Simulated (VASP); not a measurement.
# Normal strain, stress and strain energy of cubic BN under biaxial (111) strain, LDA

The calculation gives the normal strain, in-plane stress and strain energy of cubic BN that is stretched or compressed in its (111) plane, with the normal direction left free of stress. Strains and energies are measured against the crystal relaxed with LDA.

The brief is a 20 nm (111) film that serves as a stress gauge: diffraction reads the spacing along the normal, and one elastic modulus converts the in-plane strain to stress. Three constraints are set. The normal spacing must change by at least 0.12 %. The force per width of film must stay at or below 250 N/m in magnitude. The stress must agree with a single linear modulus within 6 %. Either sign of strain is allowed, and among the rows that pass, the smallest force wins.

## Method

The start is a typed prototype cell. The crystal was relaxed with LDA. Equal strain is imposed in the (111) plane; the strain along the normal is adjusted until the normal stress vanishes, and the atoms are relaxed with LDA. VASP 6.6.1, plane waves with PAW, cutoff 600 eV, no spin polarisation, no spin-orbit coupling, k mesh 14×14×14, static lattice.

Notes on method and selection:

- Runs that did not converge, have known faults or may not be shown are not listed, and runs on Ansatz's PAW sets soft_1 and soft_2 are kept to separate tables.

Columns:

- strain (%): strain in the plane (tension positive).
- gap (eV): band gap on the k mesh at LDA.
- normal strain (%): strain along the normal.
- stress (GPa): in-plane stress, tension positive.
- strain energy (meV/atom): energy per atom above the relaxed crystal.

Input lines of one member:

```
PREC = Accurate
ENCUT = 600
EDIFF = 1E-07
NELM = 120
ISMEAR = 0
SIGMA = 0.02
LREAL = .FALSE.
ALGO = Normal
GGA = CA
NBANDS = 10
LASPH = .TRUE.
LORBIT = 11
KPAR = 2
IBRION = 1
NSW = 25
```

Command (options for logging and memory left out): `mpirun -np 2 vasp_std`

## Computed values

| member | strain (%) | gap (eV) | normal strain (%) | stress (GPa) | strain energy (meV/atom) |
| --- | --- | --- | --- | --- | --- |
| −2 % | −2.0 | 4.339 | 0.340 | −24.32 | 17.37 |
| −1.5 % | −1.5 | 4.354 | 0.254 | −17.84 | 9.769 |
| −1 % | −1.0 | 4.364 | 0.170 | −11.64 | 4.400 |
| −0.5 % | −0.5 | 4.372 | 0.086 | −5.70 | 1.168 |
| 0 % | 0.0 | 4.375 | 0.003 | −0.03 | 3.00×10⁻⁵ |
| +0.5 % | 0.5 | 4.343 | −0.080 | 5.39 | 0.8340 |
| +1 % | 1.0 | 4.310 | −0.161 | 10.57 | 3.580 |
| +1.5 % | 1.5 | 4.279 | −0.243 | 15.50 | 8.175 |
| +2 % | 2.0 | 4.250 | −0.324 | 20.20 | 14.54 |

normal strain (%) against strain (%):

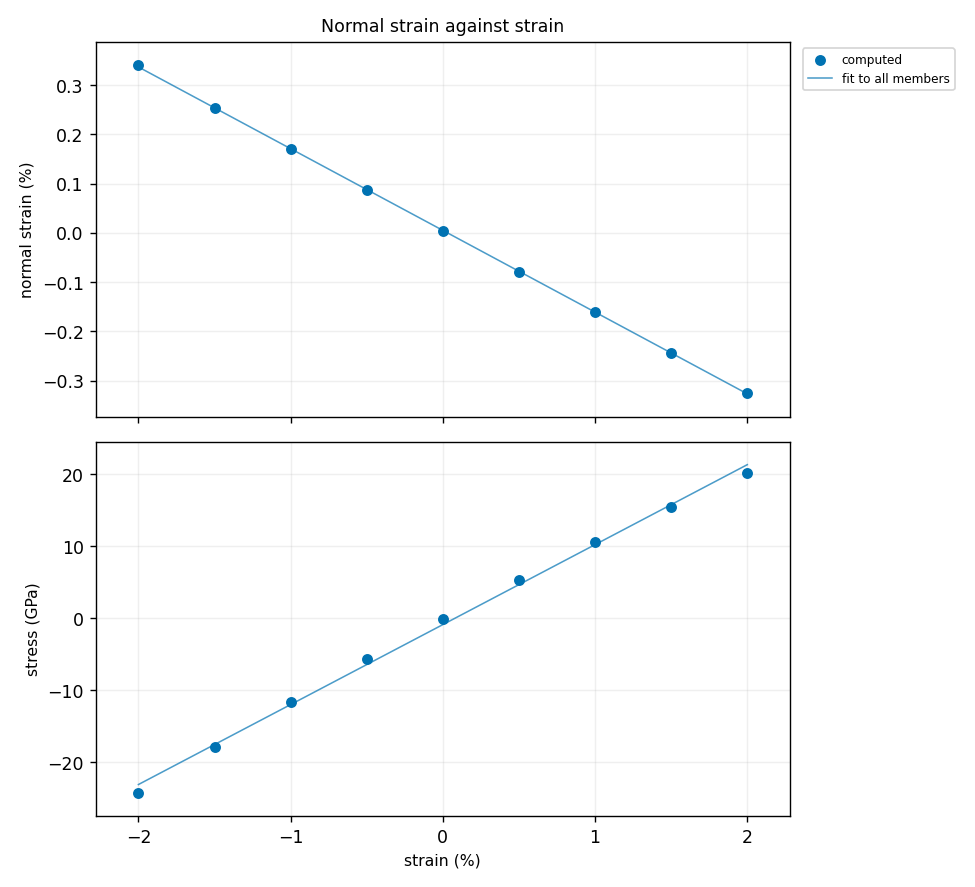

Least-squares fits to the whole series, with x = strain (%); R² and errors in the fitted variable (y, or ln y where the fit is in ln y):

| y | members | fit | R² | rms residual | leave-one-out rms | the same for the mean of the others |
| --- | --- | --- | --- | --- | --- | --- |
| normal strain (%) | 9 | y = 0.005000 − 0.1658 x | 1.00 | 0.0019 | 0.0027 | 0.24 |
| stress (GPa) | 9 | y = −0.8744 + 11.12 x | 1.00 | 0.74 | 1.1 | 16 |

## Interpretation

Around zero strain the stress rises by (5.39 + 5.70) / 1.0 = 11.09 GPa per % of strain, which gives a biaxial modulus M = 11.09 × 100 = 1109 GPa. The normal contracts by r = (0.086 + 0.080) / 1.0 = 0.166 % per % of in-plane tension.

In a cubic crystal this deformation combines a volume change, resisted by the bulk modulus B, with a trigonal shear, resisted by C₄₄. Linear elasticity gives

r = 2(3B − 2C₄₄) / (3B + 4C₄₄) and M = 18 B C₄₄ / (3B + 4C₄₄).

The first relation yields C₄₄/B = 3(2 − r) / (4(1 + r)) = 3 × (2 − 0.166) / (4 × (1 + 0.166)) = 1.18. The second then yields B = 1109 × (3 + 4 × 1.18) / (18 × 1.18) = 403 GPa, and C₄₄ = 1.18 × 403 = 476 GPa. C₁₁ and C₁₂ enter only through C₁₁ + 2C₁₂ = 3B, so this strain does not fix them singly. The contraction is small because the directional sp³ bonds resist bending strongly. The shift of the boron and nitrogen sublattices along the normal relieves part of the shear, and this C₄₄ includes that relief.

The stress curve bends: bonds stiffen when shortened and soften when stretched. With x the strain in %, σ = −0.03 + 11.1x − 0.51x² (GPa) reproduces all nine rows within 0.07 GPa, with an rms miss of 0.03 GPa against about 16 GPa when each row is guessed from the mean of the others. The straight-line fit misses by 0.74 GPa rms despite its R² of 1.00. Its intercept of −0.8744 GPa comes from the curvature and is not a residual stress, since the unstrained row has only −0.03 GPa.

The strain energy is mainly quadratic. Averaged over both signs it is (4.400 + 3.580) / 2 = 3.99 meV/atom at 1 % and (17.37 + 14.54) / 2 = 15.96 meV/atom at 2 %, four times as much.

## Outliers

Largest departures from the fit to the whole series:

| member | normal strain (%) | fit | computed − fit | in rms residuals |
| --- | --- | --- | --- | --- |
| −2 % | 0.340 | 0.337 | +0.003 | 1.8 |
| +2 % | −0.324 | −0.327 | +0.003 | 1.4 |
| +0.5 % | −0.080 | −0.078 | −0.002 | 1.1 |
| 0 % | 0.003 | 0.005 | −0.002 | 1.1 |

The stress and normal strain follow smooth curves, but the small-strain energies are odd. Compression costs more than tension by a factor of 17.37 / 14.54 = 1.19 at 2 %, and by 1.168 / 0.8340 = 1.40 at 0.5 %. Anharmonic bonds alone would bring this factor towards one as the strain shrinks.

The energies therefore contain a small term linear in strain that the stresses do not show. A likely cause is the finite plane-wave basis. At fixed cutoff a larger cell receives more plane waves, whereas the stress is evaluated for a fixed set of waves. The stress then vanishes in a cell slightly smaller than the one of lowest energy. The sign fits, because stretching from such a cell costs less than compressing it. A series at higher cutoff would test this.

The average over both signs removes the linear term, so the quadratic coefficient can be trusted. The difference between tension and compression at 0.5 % should not be read as anharmonicity.

## Selection

The force per width is F = σt, with t = 20 nm = 20 × 10⁻⁹ m and 1 GPa = 10⁹ N/m², so each GPa contributes 20 N/m. Linearity is judged by the ratio of the computed stress to 11.09 GPa per % times the strain.

- **0 % and ±0.5 %:** rejected, since the normal spacing changes by at most 0.086 %.
- **+1 %:** spacing change 0.161 %, F = 10.57 × 20 = 211 N/m, stress ratio 10.57 / 11.09 = 0.95. It passes.
- **−1 %:** spacing change 0.170 %, F = 11.64 × 20 = 233 N/m in compression, stress ratio 11.64 / 11.09 = 1.05. It passes.
- **±1.5 %:** rejected, with 15.50 × 20 = 310 N/m in tension and 17.84 × 20 = 357 N/m in compression, and stresses about 7 % off the linear value.
- **±2 %:** rejected, with 20.20 × 20 = 404 N/m in tension and 24.32 × 20 = 486 N/m in compression.

LDA elastic moduli of stiff covalent crystals are typically good to roughly 5 %. If the stress were 5 % higher, the force would be 10.57 × 20 × 1.05 = 222 N/m for +1 % and 11.64 × 20 × 1.05 = 244 N/m for −1 %, so both stay within the limit. The error is largely common to the two rows and leaves their order unchanged.

The spacing is more delicate, because r depends on the difference 3B − 2C₄₄ = 3 × 403 − 2 × 476 = 257 GPa. If C₄₄ alone were 5 % higher, r would fall to 0.13 and the +1 % row would still pass, at about 0.13 %. If B were also 5 % lower, r would fall to about 0.09 and neither 1 % row would pass.

The pick is +1 %, for its smaller force, and the runner-up is −1 %. A real film could reverse this order. Tension near 10 GPa can open cracks at defects that a perfect crystal lacks, and cubic BN films usually grow under compressive stress. Either would favour −1 %.

## What to take away

Between −2 % and +2 %, the normal strain is linear in the imposed strain to within 0.003 percentage points. A constant modulus gives the stress within about 3 % at ±0.5 %, 5 % at ±1 % and 10 % at ±2 %; it overestimates tension and underestimates compression. One quadratic term removes nearly all of this error.

Lattice vibrations, absent from the static calculation, would soften the moduli by a few per cent and lower the force at a given strain by a similar share. The gap carries a larger error: LDA places it too low by roughly 2 eV, while the whole series spans 4.375 − 4.250 = 0.125 eV. The gap column therefore serves for shifts with strain, not for absolute values.

[Logs are printed without paths, hosts, clocks, repeated set-up lines and the standing remarks that a program may print on its own settings, such as how far it seeks lower states.]
